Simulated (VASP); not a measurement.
# Valence-band splitting and top hole masses of Si under biaxial (111) strain at r2SCAN with spin-orbit coupling

As a rule of thumb, biaxial strain splits the valence-band top of a cubic semiconductor in proportion to the strain, and compression makes the holes light in the plane. Both halves matter for p-channel transistors, where a small mass along the current and a second band well out of thermal reach raise the hole mobility. The series puts the rule to the test for Si strained in the (111) plane between −2 % and +2 %. The second and third valence levels at Γ are given as distances below the highest one, and the masses belong to the highest band. Strain is counted from the cell relaxed with LDA, which at r2SCAN is still under compressive pressure.

## Calculations

The start is a typed prototype cell. The crystal was relaxed with LDA. Equal strain is imposed in the (111) plane; the strain along the normal is adjusted until the normal stress vanishes, and the atoms are relaxed with LDA. VASP 6.6.1, plane waves with PAW, cutoff 450 eV, no spin polarisation. Band edges are single points at r2SCAN with spin-orbit coupling on these cells, k mesh 8×8×8, read on short lines of k points at the zone centre and through the valleys; energies are counted from the valence-band top at the zone centre. Each level is the mean of a Kramers pair; masses are fitted within 0.05 1/Å of the zone centre and are rough where two bands nearly touch. All levels use the PAW data sets made with LDA.

Notes on method and selection:

- Runs that did not converge, have known faults or may not be shown are not listed, and runs on Ansatz's PAW sets soft_1 and soft_2 are kept to separate tables.

Columns:

- strain (%): strain in the plane (tension positive).
- second level (eV): second valence level below the top at Γ.
- third level (eV): third valence level below the top at Γ.
- mass, normal (mₑ): mass of the top hole band along the normal.
- mass, plane (mₑ): mass of the top hole band in the plane.

Input lines of one member:

```
PREC = Accurate
ENCUT = 450
EDIFF = 1E-06
NELM = 100
ISMEAR = 0
SIGMA = 0.02
LREAL = .FALSE.
ALGO = Normal
METAGGA = R2SCAN
LASPH = .TRUE.
LNONCOLLINEAR = .TRUE.
NBANDS = 18
GGA_COMPAT = .FALSE.
LSORBIT = .TRUE.
KPAR = 2
```

Command (options for logging and memory left out): `mpirun -np 2 vasp_ncl`

## Data

```
member  sign of the strain  strain (%)  second level (eV)  third level (eV)  mass, normal (mₑ)  mass, plane (mₑ)
−2 %    compression         −2.0        0.0310             0.361             0.657              0.186
−1.5 %  compression         −1.5        0.0302             0.267             0.649              0.185
−1 %    compression         −1.0        ?                  ?                 ?                  ?
−0.5 %  compression         −0.5        0.0245             0.100             0.634              0.189
0 %     compression         0.0         0.0000             0.048             0.621              0.532
0 %     tension             0.0         0.0000             0.048             0.621              0.532
+0.5 %  tension             0.5         0.0606             0.098             0.097              0.532
+1 %    tension             1.0         0.1246             0.159             0.104              0.528
+1.5 %  tension             1.5         ?                  ?                 ?                  ?
+2 %    tension             2.0         0.2403             0.273             0.108              0.485
```

Cells marked ? are withheld until the estimate has been made.

third level (eV) against strain (%), members shown:

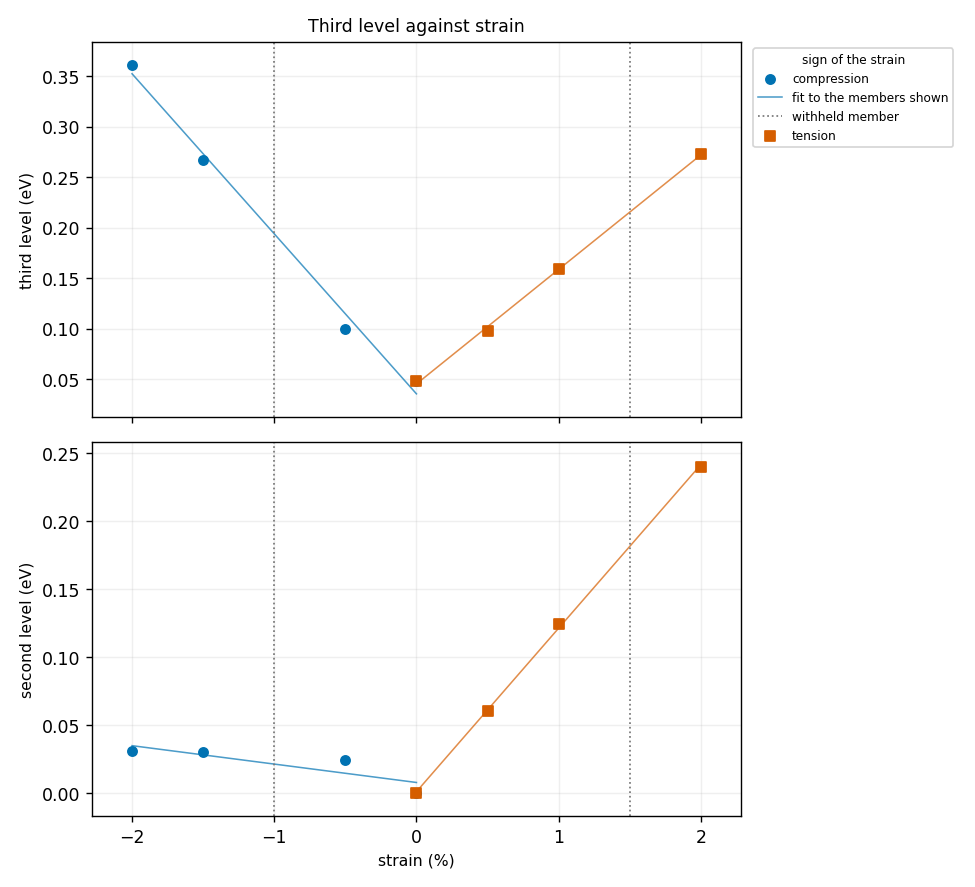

Least-squares fits to the members shown, with x = strain (%); R² and errors in the fitted variable (y, or ln y where the fit is in ln y):

```
y                  sign of the strain  members  fit                       R²    rms residual  leave-one-out rms  the same for the mean of the others
third level (eV)   compression         4        y = 0.03540 − 0.1586 x    0.99  0.011         0.025              0.17
third level (eV)   tension             4        y = 0.04520 + 0.1135 x    1.00  0.0025        0.0051             0.11
second level (eV)  compression         4        y = 0.007885 − 0.01354 x  0.72  0.0067        0.015              0.017
second level (eV)  tension             4        y = 0.001100 + 0.1203 x   1.00  0.0019        0.0049             0.12
```

## Reading the trend

The proportional rule holds for the second level under tension only. There the level lies 0.0606 eV below the top at +0.5 % and 0.2403 eV at +2 %, or 0.0606 / 0.5 = 0.121 and 0.2403 / 2 = 0.120 eV per percent. Under compression it levels off: 0.0245, 0.0302 and 0.0310 eV at −0.5, −1.5 and −2 %. The third level takes up the strain instead and reaches 0.361 eV.

Spin-orbit coupling explains the difference. Let D be the strain splitting between the p states in the plane and the one along the normal, positive under compression, and Δ = 0.048 eV the spin-orbit splitting of the unstrained crystal. With R = √(D² − 2ΔD/3 + Δ²), the standard three-level model gives

- compression: second level (D + Δ − R)/2, third level (D + Δ + R)/2;
- tension: second level (R − D − Δ)/2, third level R.

Under strong compression the two highest levels both come from the in-plane p states, and only spin-orbit coupling parts them, by at most 2 × 0.048 / 3 = 0.032 eV. Under tension the p state along the normal is on top, and strain itself separates it from the other two. A likely origin of this order is the tilt of the three slanted bonds: in-plane compression turns them towards the normal, which strengthens the σ bonding of the p state along the normal and lowers it.

The masses follow the same exchange, since a p band is light along its lobes and heavy across them. From −0.5 % to +0.5 % the mass along the normal falls from 0.634 to 0.097 mₑ, a factor of 0.634 / 0.097 = 6.5, while the mass in the plane rises from 0.189 to 0.532 mₑ, a factor of 0.532 / 0.189 = 2.8. Compression thus does give light holes in the plane, but with a second band only about 0.03 eV away, which also makes these fitted masses rougher. On either side, more strain changes the masses far less than the change of sign does.

## An estimate before looking

Plain estimates from the members shown:

- +1.5 % (tension), fit at x = 1.5: 0.215 eV
- +1.5 % (tension), straight-line interpolation between +1 % and +2 %: w = (1.5 − 1.0) / (2.0 − 1.0) = 0.500, so 0.159 + 0.500 × (0.273 − 0.159) = 0.216 eV
- −1 % (compression), fit at x = −1.0: 0.194 eV
- −1 % (compression), straight-line interpolation between −1.5 % and −0.5 %: w = (−1.0 − (−1.5)) / (−0.5 − (−1.5)) = 0.500, so 0.267 + 0.500 × (0.100 − 0.267) = 0.183 eV

The straight-line fits miss the bending that spin-orbit coupling causes at small strain, and straight-line interpolation ignores whatever bending remains between the neighbours. The route chosen interpolates D per percent linearly in strain and returns to the third level through the three-level model.

For +1.5 %, the third level is R, and solving for the size of D gives √(0.159² − 8 × 0.048² / 9) − 0.048 / 3 = 0.1364 eV at +1 % and √(0.273² − 8 × 0.048² / 9) − 0.048 / 3 = 0.2532 eV at +2 %, the latter being 0.2532 / 2 = 0.1266 eV per percent. The mean is (0.1364 + 0.1266) / 2 = 0.1315 eV per percent, so D = −1.5 × 0.1315 = −0.197 eV and R = √(0.197² + 2 × 0.048 × 0.197 / 3 + 0.048²) = 0.218 eV.

For −1 %, the second and third levels add up to D + Δ. Hence D = 0.0245 + 0.100 − 0.048 = 0.0765 eV at −0.5 % and 0.0302 + 0.267 − 0.048 = 0.2492 eV at −1.5 %, or 0.0765 / 0.5 = 0.1530 and 0.2492 / 1.5 = 0.1661 eV per percent. At −1 % the mean gives D = (0.0765 / 0.5 + 0.2492 / 1.5) / 2 = 0.1596 eV and R = √(0.1596² − 2 × 0.048 × 0.1596 / 3 + 0.048²) = 0.1506 eV, so the third level lies at (0.1596 + 0.048 + 0.1506)/2 = 0.179 eV.

Tried on shown members, the route gives 0.159 eV at +1 % from +0.5 and +2 %, and 0.267 eV at −1.5 % from −0.5 and −2 %. Both agree with the table to its last digit, so the error is set by the printed rounding and the small misfit of the model, about 0.001 eV.

**Committed estimate, +1.5 % (tension): third level = 0.218 ± 0.001 eV.**  
**Committed estimate, −1 % (compression): third level = 0.179 ± 0.001 eV.**

## Result

```
member  sign of the strain  strain (%)  second level (eV)  third level (eV)  mass, normal (mₑ)  mass, plane (mₑ)
−1 %    compression         −1.0        0.0287             0.178             0.641              0.187
+1.5 %  tension             1.5         0.1849             0.218             0.106              0.511
```

```
member              estimate       third level (eV)  computed  estimate − computed  miss in error bars
+1.5 % (tension)    committed      0.218             0.218     0.000                0.0
+1.5 % (tension)    fit            0.215             0.218     −0.003
+1.5 % (tension)    interpolation  0.216             0.218     −0.002
−1 % (compression)  committed      0.179             0.178     +0.001               1.0
−1 % (compression)  fit            0.194             0.178     +0.016
−1 % (compression)  interpolation  0.183             0.178     +0.006
```

third level (eV) against strain (%):

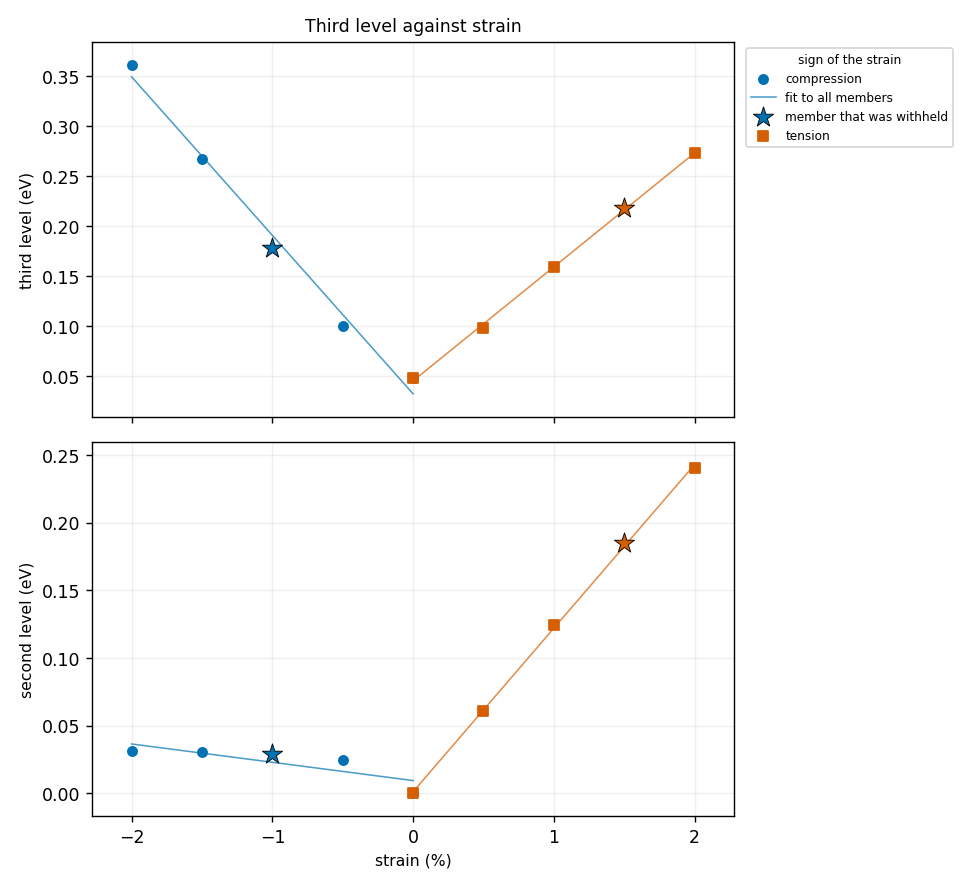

Both estimates agree with the calculation to within 0.001 eV. At +1.5 % the third level comes out at 0.218 eV, as estimated; at −1 % it is 0.178 eV against 0.179 eV, a miss as large as the error bar. The plain estimates do worse in both cases, most clearly the straight-line fit at −1 %, which is 0.016 eV too high.

The second level, also withheld, gives a separate check, because the same D and R fix it without further input. At −1 % the model gives (0.1596 + 0.048 − 0.1506)/2 = 0.0285 eV, and the table has 0.0287 eV. At +1.5 % it gives (0.218 + 0.197 − 0.048)/2 = 0.184 eV, and the table has 0.1849 eV. One strain splitting and one fixed spin-orbit splitting therefore describe both levels to about 0.001 eV, which supports the proposed competition between strain and spin-orbit coupling.

## Where the trend breaks

Least-squares fits to the whole series, with x = strain (%); R² and errors in the fitted variable (y, or ln y where the fit is in ln y):

```
y                  sign of the strain  members  fit                       R²    rms residual  leave-one-out rms  the same for the mean of the others
third level (eV)   compression         5        y = 0.03220 − 0.1586 x    0.99  0.012         0.024              0.14
third level (eV)   tension             5        y = 0.04520 + 0.1140 x    1.00  0.0024        0.0043             0.10
second level (eV)  compression         5        y = 0.009340 − 0.01354 x  0.67  0.0067        0.014              0.015 (fit hardly better)
second level (eV)  tension             5        y = 0.001100 + 0.1210 x   1.00  0.0021        0.0040             0.11
```

Largest departures from the fit to the whole series:

```
member  sign of the strain  third level (eV)  fit    computed − fit  in rms residuals
+0.5 %  tension             0.098             0.102  −0.004          1.7
0 %     compression         0.048             0.032  +0.016          1.3
0 %     tension             0.048             0.045  +0.003          1.2
−1 %    compression         0.178             0.191  −0.013          1.1
```

The departures reflect the shape of the curve rather than peculiar members. Under compression the third level lies 0.016 eV above the straight line at zero strain and 0.013 eV below it at −1 %, as expected for a curve that bends upwards. In the three-level model the level starts at Δ and at first moves by only a third of D, because spin-orbit coupling still mixes the p states; once D is much larger than Δ, it moves by nearly the whole of D. The growth of D per percent, from 0.0765 / 0.5 = 0.153 eV at −0.5 % to (0.0310 + 0.361 − 0.048) / 2 = 0.172 eV at −2 %, bends the curve further the same way.

Under tension the largest departure is only −0.004 eV, at +0.5 %. The spin-orbit bending is present there too, but D per percent shrinks with strain and offsets part of it.

For the second level under compression a straight line is the wrong form altogether, and its leave-one-out error of 0.014 eV is hardly below the 0.015 eV of the mean. The level saturates near two thirds of Δ.

## Conclusions

Between 0.5 and 2 % strain of either sign, interpolating D per percent and applying the three-level model gives a new member's third level to about 0.001 eV at this level of theory.

For devices, the sign of the strain sets a trade-off. Compression gives a light top band in the plane, about 0.19 mₑ, but keeps the second band close. With a thermal energy of roughly 0.026 eV at room temperature, the Boltzmann factor of the second level at Γ is still exp(−0.0310/0.026) = 0.30 at −2 %. At only +0.5 % it is already down to exp(−0.0606/0.026) = 0.10, but the top band is then heavy in the plane, 0.532 mₑ, and light only along the normal.

The best-known error of r2SCAN for Si, a band gap too small by a few tenths of an eV, should largely cancel in splittings within the valence band, though no measured splitting is compared here.

[Logs are printed without paths, hosts, clocks, repeated set-up lines and the standing remarks that a program may print on its own settings, such as how far it seeks lower states.]
